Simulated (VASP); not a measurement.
# Splitting of the Δ conduction valleys of BAs (F-43m) under biaxial (001) strain, TB-mBJ with spin-orbit coupling on LDA cells

We calculate the conduction-valley energies of zinc-blende BAs under equal in-plane strain from −2 % to +2 %, with the (001) normal free to relax. The question is how the strain divides the six Δ valleys, which are equivalent in the cubic crystal, and which group then lies lowest. This matters for an n-type layer grown on a mismatched substrate, because the occupied valleys set the in-plane effective mass and the strength of scattering between valleys. The splitting is the energy of the valley along [100] less that of the valley along [001], so a positive value puts [001] lower. Single valley energies are counted from the valence-band top at the zone centre of the same strained cell.

## Computational details

The start is a typed prototype cell. The crystal was relaxed with LDA. Equal strain is imposed in the (001) plane; the strain along the normal is adjusted until the normal stress vanishes, and the atoms are relaxed with LDA. VASP 6.6.1, plane waves with PAW, cutoff 480 eV, no spin polarisation. Band edges are single points at TB-mBJ with spin-orbit coupling on these cells, k mesh 9×9×9, read on short lines of k points at the zone centre and through the valleys; energies are counted from the valence-band top at the zone centre.  All levels use the PAW data sets made with LDA.

Notes on method and selection:

- A valley's energy from the valence-band top holds the shift of that top as well as the shift of the valley.
- The TB-mBJ parameter c is fixed anew from the density of each cell, so it changes along the series.
- Runs that did not converge, have known faults or may not be shown are not listed, and runs on Ansatz's PAW sets soft_1 and soft_2 are kept to separate tables.

Columns:

- strain (%): strain in the plane (tension positive).
- splitting (eV): valley along [100] less valley along [001].
- Δ [001] (eV): minimum of the conduction band along Γ–X in the [001] direction.
- Δ [100] (eV): minimum of the conduction band along Γ–X in the [100] direction.
- L [111] (eV): conduction level at L along [111].
- Γ level (eV): lowest conduction level at Γ.

## The series

| member | strain (%) | splitting (eV) | Δ [001] (eV) | Δ [100] (eV) | L [111] (eV) | Γ level (eV) |
| --- | --- | --- | --- | --- | --- | --- |
| −2 % | −2.0 | −0.401 | 1.778 | 1.377 | 3.284 | 3.516 |
| −1.5 % | −1.5 | −0.300 | 1.750 | 1.450 | 3.307 | 3.546 |
| −1 % | −1.0 | −0.199 | 1.722 | 1.523 | 3.317 | 3.574 |
| −0.5 % | −0.5 | ? | ? | ? | ? | ? |
| 0 % | 0.0 | 0.000 | 1.665 | 1.665 | 3.309 | 3.622 |
| +0.5 % | 0.5 | 0.098 | 1.577 | 1.675 | 3.231 | 3.579 |
| +1 % | 1.0 | 0.197 | 1.480 | 1.677 | 3.140 | 3.523 |
| +1.5 % | 1.5 | 0.293 | 1.382 | 1.675 | 3.040 | 3.459 |
| +2 % | 2.0 | 0.389 | 1.282 | 1.672 | 2.935 | 3.389 |

Cells marked ? are withheld until the estimate has been made.

splitting (eV) against strain (%), members shown:

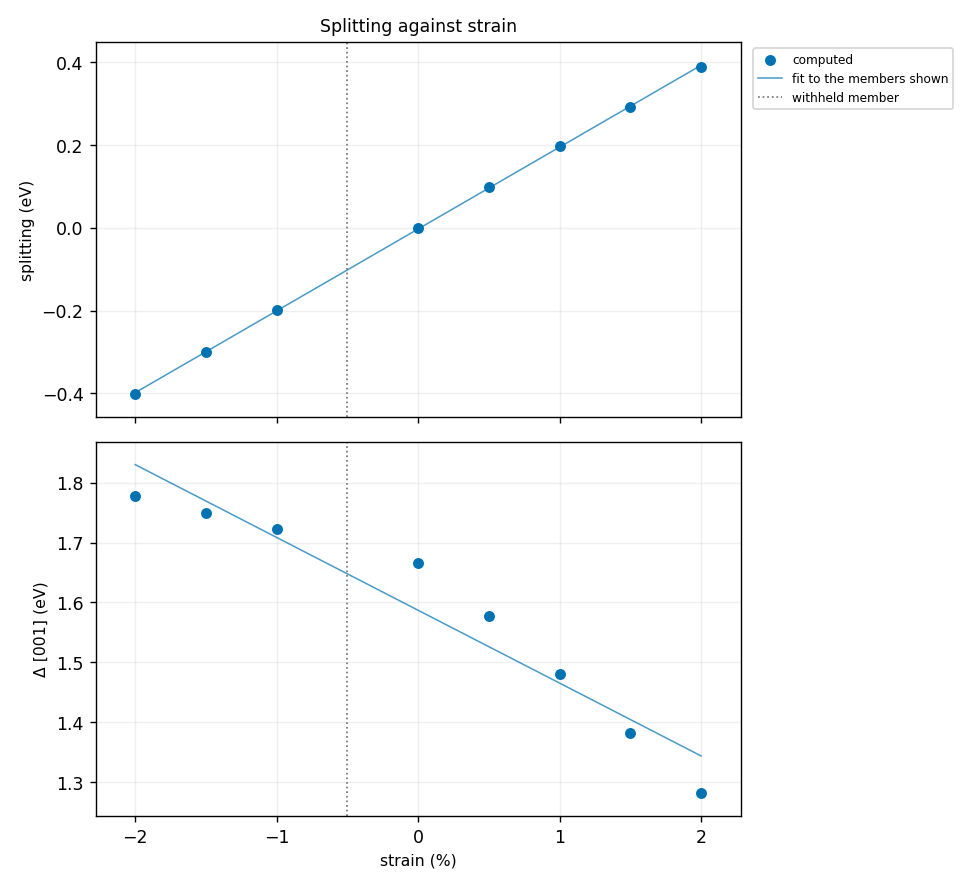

Least-squares fits to the members shown, with x = strain (%); R² and errors in the fitted variable (y, or ln y where the fit is in ln y):

| y | members | fit | R² | rms residual | leave-one-out rms | the same for the mean of the others |
| --- | --- | --- | --- | --- | --- | --- |
| splitting (eV) | 8 | y = −0.002730 + 0.1977 x | 1.00 | 0.0022 | 0.0033 | 0.31 |
| Δ [001] (eV) | 8 | y = 1.587 − 0.1214 x | 0.93 | 0.045 | 0.063 | 0.20 |

## Reading the trend

Tension makes the two valleys along the normal, ±[001], the lowest; compression favours the four in-plane valleys. At +2 % the [001] valley lies 0.389 eV below [100], and at −2 % it lies 0.401 eV above. The mean slope between these ends is (0.389 − (−0.401)) / 4.0 = 0.198 eV per % strain. Even at +0.5 % the splitting of 0.098 eV is several times the thermal energy at room temperature, so most electrons in a lightly doped layer would occupy the lower group.

The cause is the loss of cubic symmetry. In-plane tension lengthens the [100] and [010] axes, while the free normal contracts. To first order the splitting is Ξ × (in-plane strain − normal strain), where Ξ is the shear deformation potential of the Δ valleys. The signs in the table correspond to a positive Ξ: a valley rises when the crystal is stretched along its own axis. Symmetry keeps both atoms at their ideal positions, so no internal displacement contributes.

The single valley energies behave less simply. From 0 to +2 % the [001] valley falls by 1.665 − 1.282 = 0.383 eV while [100] ends only 1.672 − 1.665 = 0.007 eV higher; from 0 to −2 % [100] falls by 1.665 − 1.377 = 0.288 eV and [001] rises by 1.778 − 1.665 = 0.113 eV. The mean over all six valleys drops from 1.665 eV in the cubic crystal to (2 × 1.672 + 1.282) / 3 = 1.542 eV at +2 % and to (2 × 1.377 + 1.778) / 3 = 1.511 eV at −2 %. A volume effect linear in strain would change sign between the two sides. A fall on both sides is expected when strain splits the valence-band top and its upper branch becomes the reference. This shift cancels in the valley splitting, which is why the splitting is nearly linear although the gap narrows under either sign of strain.

The levels at L and Γ do not compete: among the rows shown, L comes closest to the lowest Δ valley in the unstrained crystal, and even there it lies 3.309 − 1.665 = 1.644 eV above.

## Blind estimate

Plain estimates from the members shown:

- −0.5 %, fit at x = −0.5: −0.102 eV
- −0.5 %, straight-line interpolation between −1 % and 0 %: w = (−0.5 − (−1.0)) / (0.0 − (−1.0)) = 0.500, so −0.199 + 0.500 × (0.000 − (−0.199)) = −0.100 eV

We use the straight line between the neighbours at −1 % and 0 %. It keeps the splitting at exactly zero in the unstrained crystal, as cubic symmetry requires. The fit to all members has an intercept of −0.0027 eV there, which pulls its estimate to −0.102 eV.

The interpolation gives (−0.199 + 0.000) / 2 = −0.0995 eV. The same route on the tension side gives (0.000 + 0.197) / 2 = 0.0985 eV for +0.5 %, against 0.098 eV in the table. At −1.5 % and +1.5 %, the midpoints of the neighbouring rows reproduce the tabulated −0.300 and 0.293 eV.

Curvature calls for no useful correction. The values at ±1 % give a quadratic coefficient of (0.197 − 0.199) / 2 = −0.001 eV per %², which would change the midpoint between two rows 1 % apart by only 0.001 × 0.5 × 0.5 = 0.00025 eV in size. The valence-band top drops out of the difference, and the change of the TB-mBJ parameter c with strain acts on both valleys of a cell together, so neither argues for a separate shift.

Interpolating +1 % from +0.5 % and +1.5 % gives (0.098 + 0.293) / 2 = 0.1955 eV, a miss of 0.197 − 0.1955 = 0.0015 eV and the largest among these trials. With the smaller misses elsewhere, we take 0.001 eV as one standard deviation. The in-plane valleys should therefore be lowest at −0.5 %, by about 0.1 eV.

**Committed estimate, −0.5 %: splitting = −0.0995 ± 0.0010 eV.**

## Result

| member | strain (%) | splitting (eV) | Δ [001] (eV) | Δ [100] (eV) | L [111] (eV) | Γ level (eV) |
| --- | --- | --- | --- | --- | --- | --- |
| −0.5 % | −0.5 | −0.099 | 1.694 | 1.594 | 3.318 | 3.600 |

| member | estimate | splitting (eV) | computed | estimate − computed | miss in error bars |
| --- | --- | --- | --- | --- | --- |
| −0.5 % | committed | −0.100 | −0.099 | −0.001 | 0.5 |
| −0.5 % | fit | −0.102 | −0.099 | −0.003 |  |
| −0.5 % | interpolation | −0.100 | −0.099 | −0.001 |  |

splitting (eV) against strain (%):

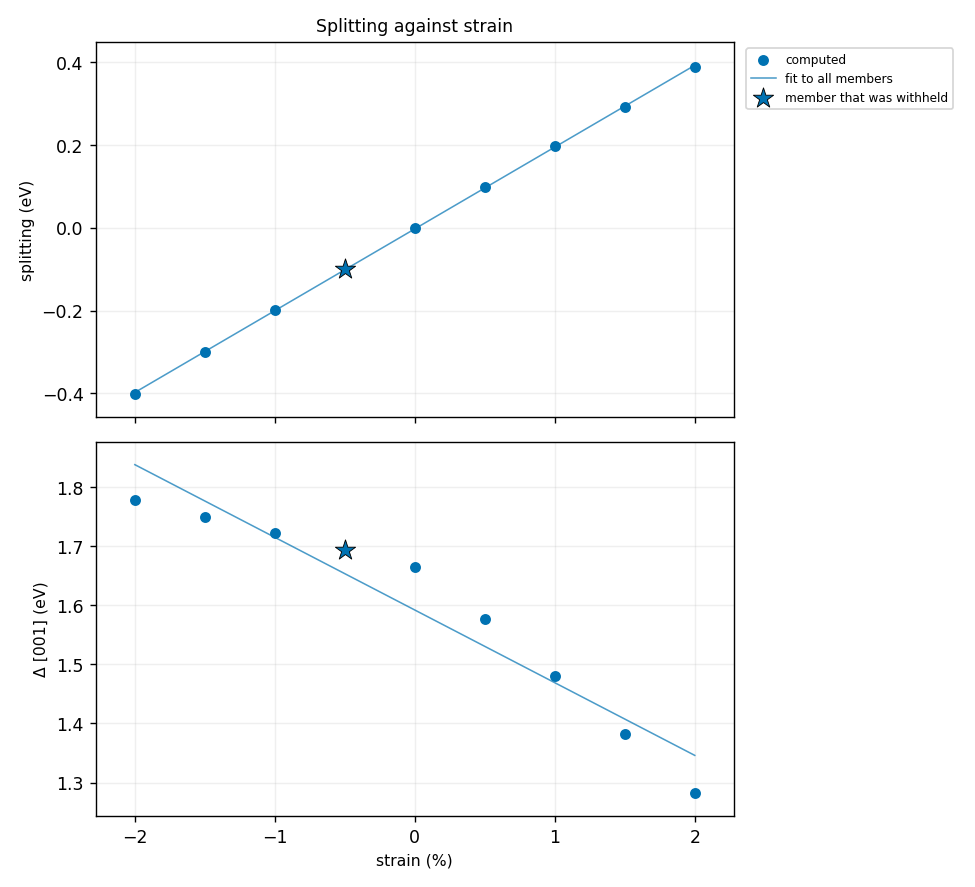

The estimate of −0.0995 eV lies within its error bar: the computed splitting is −0.099 eV, a miss of half the stated 0.001 eV. It is the plain interpolation, so it could do no better than that; the straight-line fit, at −0.102 eV, misses by 0.003 eV. Holding the splitting at zero in the cubic crystal was the useful constraint, and leaving out a curvature correction cost nothing that the printed digits can show.

As predicted, the in-plane valleys are lowest, with [100] at 1.594 eV and [001] at 1.694 eV above the valence-band top. The new row also bears on the reference level. The mean over the six valleys is (2 × 1.594 + 1.694) / 3 = 1.627 eV, which is 0.038 eV below the unstrained value. At −1 % the drop is 1.665 − (2 × 1.523 + 1.722) / 3 = 0.076 eV, twice as large. On the compressive side, such a proportional drop is what a linear rise of the upper valence branch relative to the mean of the valleys would give, with any volume effect included.

## Exceptions

Least-squares fits to the whole series, with x = strain (%); R² and errors in the fitted variable (y, or ln y where the fit is in ln y):

| y | members | fit | R² | rms residual | leave-one-out rms | the same for the mean of the others |
| --- | --- | --- | --- | --- | --- | --- |
| splitting (eV) | 9 | y = −0.002444 + 0.1976 x | 1.00 | 0.0023 | 0.0032 | 0.29 |
| Δ [001] (eV) | 9 | y = 1.592 − 0.1230 x | 0.93 | 0.045 | 0.062 | 0.19 |

Largest departures from the fit to the whole series:

| member | splitting (eV) | fit | computed − fit | in rms residuals |
| --- | --- | --- | --- | --- |
| +2 % | 0.389 | 0.393 | −0.004 | 1.7 |
| −2 % | −0.401 | −0.398 | −0.003 | 1.5 |
| 0 % | 0.000 | −0.002 | +0.002 | 1.1 |
| −0.5 % | −0.099 | −0.101 | +0.002 | 1.0 |

No member stands out: the largest departure from the line is 0.004 eV, in a series that spans 0.389 − (−0.401) = 0.790 eV. The residuals do have a pattern, with both ends below the line (−0.004 eV at +2 %, −0.003 eV at −2 %) and the members at 0 and −0.5 % above it by 0.002 eV.

This is a weak downward curvature. The two ends give a quadratic coefficient of (0.389 − 0.401) / (2 × 4) = −0.0015 eV per %², close to the −0.001 eV per %² from ±1 %. It also explains why the fitted line misses zero in the unstrained crystal, where symmetry demands it. Second-order terms in the valley shifts are a possible source.

## What to take away

Between −2 % and +2 % the splitting follows 0.198 eV per % of in-plane strain, with [001] lowest in tension and the in-plane valleys lowest in compression. Interpolation between neighbouring rows should place a new member in this range to about 0.001–0.002 eV.

For a lightly doped layer at room temperature, with a thermal energy of roughly 0.026 eV and equal densities of states per valley, +0.5 % gives a Boltzmann factor of exp(0.098 / 0.026) ≈ 43. The four upper valleys then hold 4 / (4 + 2 × 43) ≈ 0.04 of the electrons. Half a per cent of tension is thus enough to put nearly all of them in the [001] pair, whose mass for motion in the plane is the transverse one.

We expect no omitted effect to rival the range of the splitting. Lattice vibrations should lower the gap, but they are expected to shift all six valleys nearly alike and so largely cancel in the splitting.
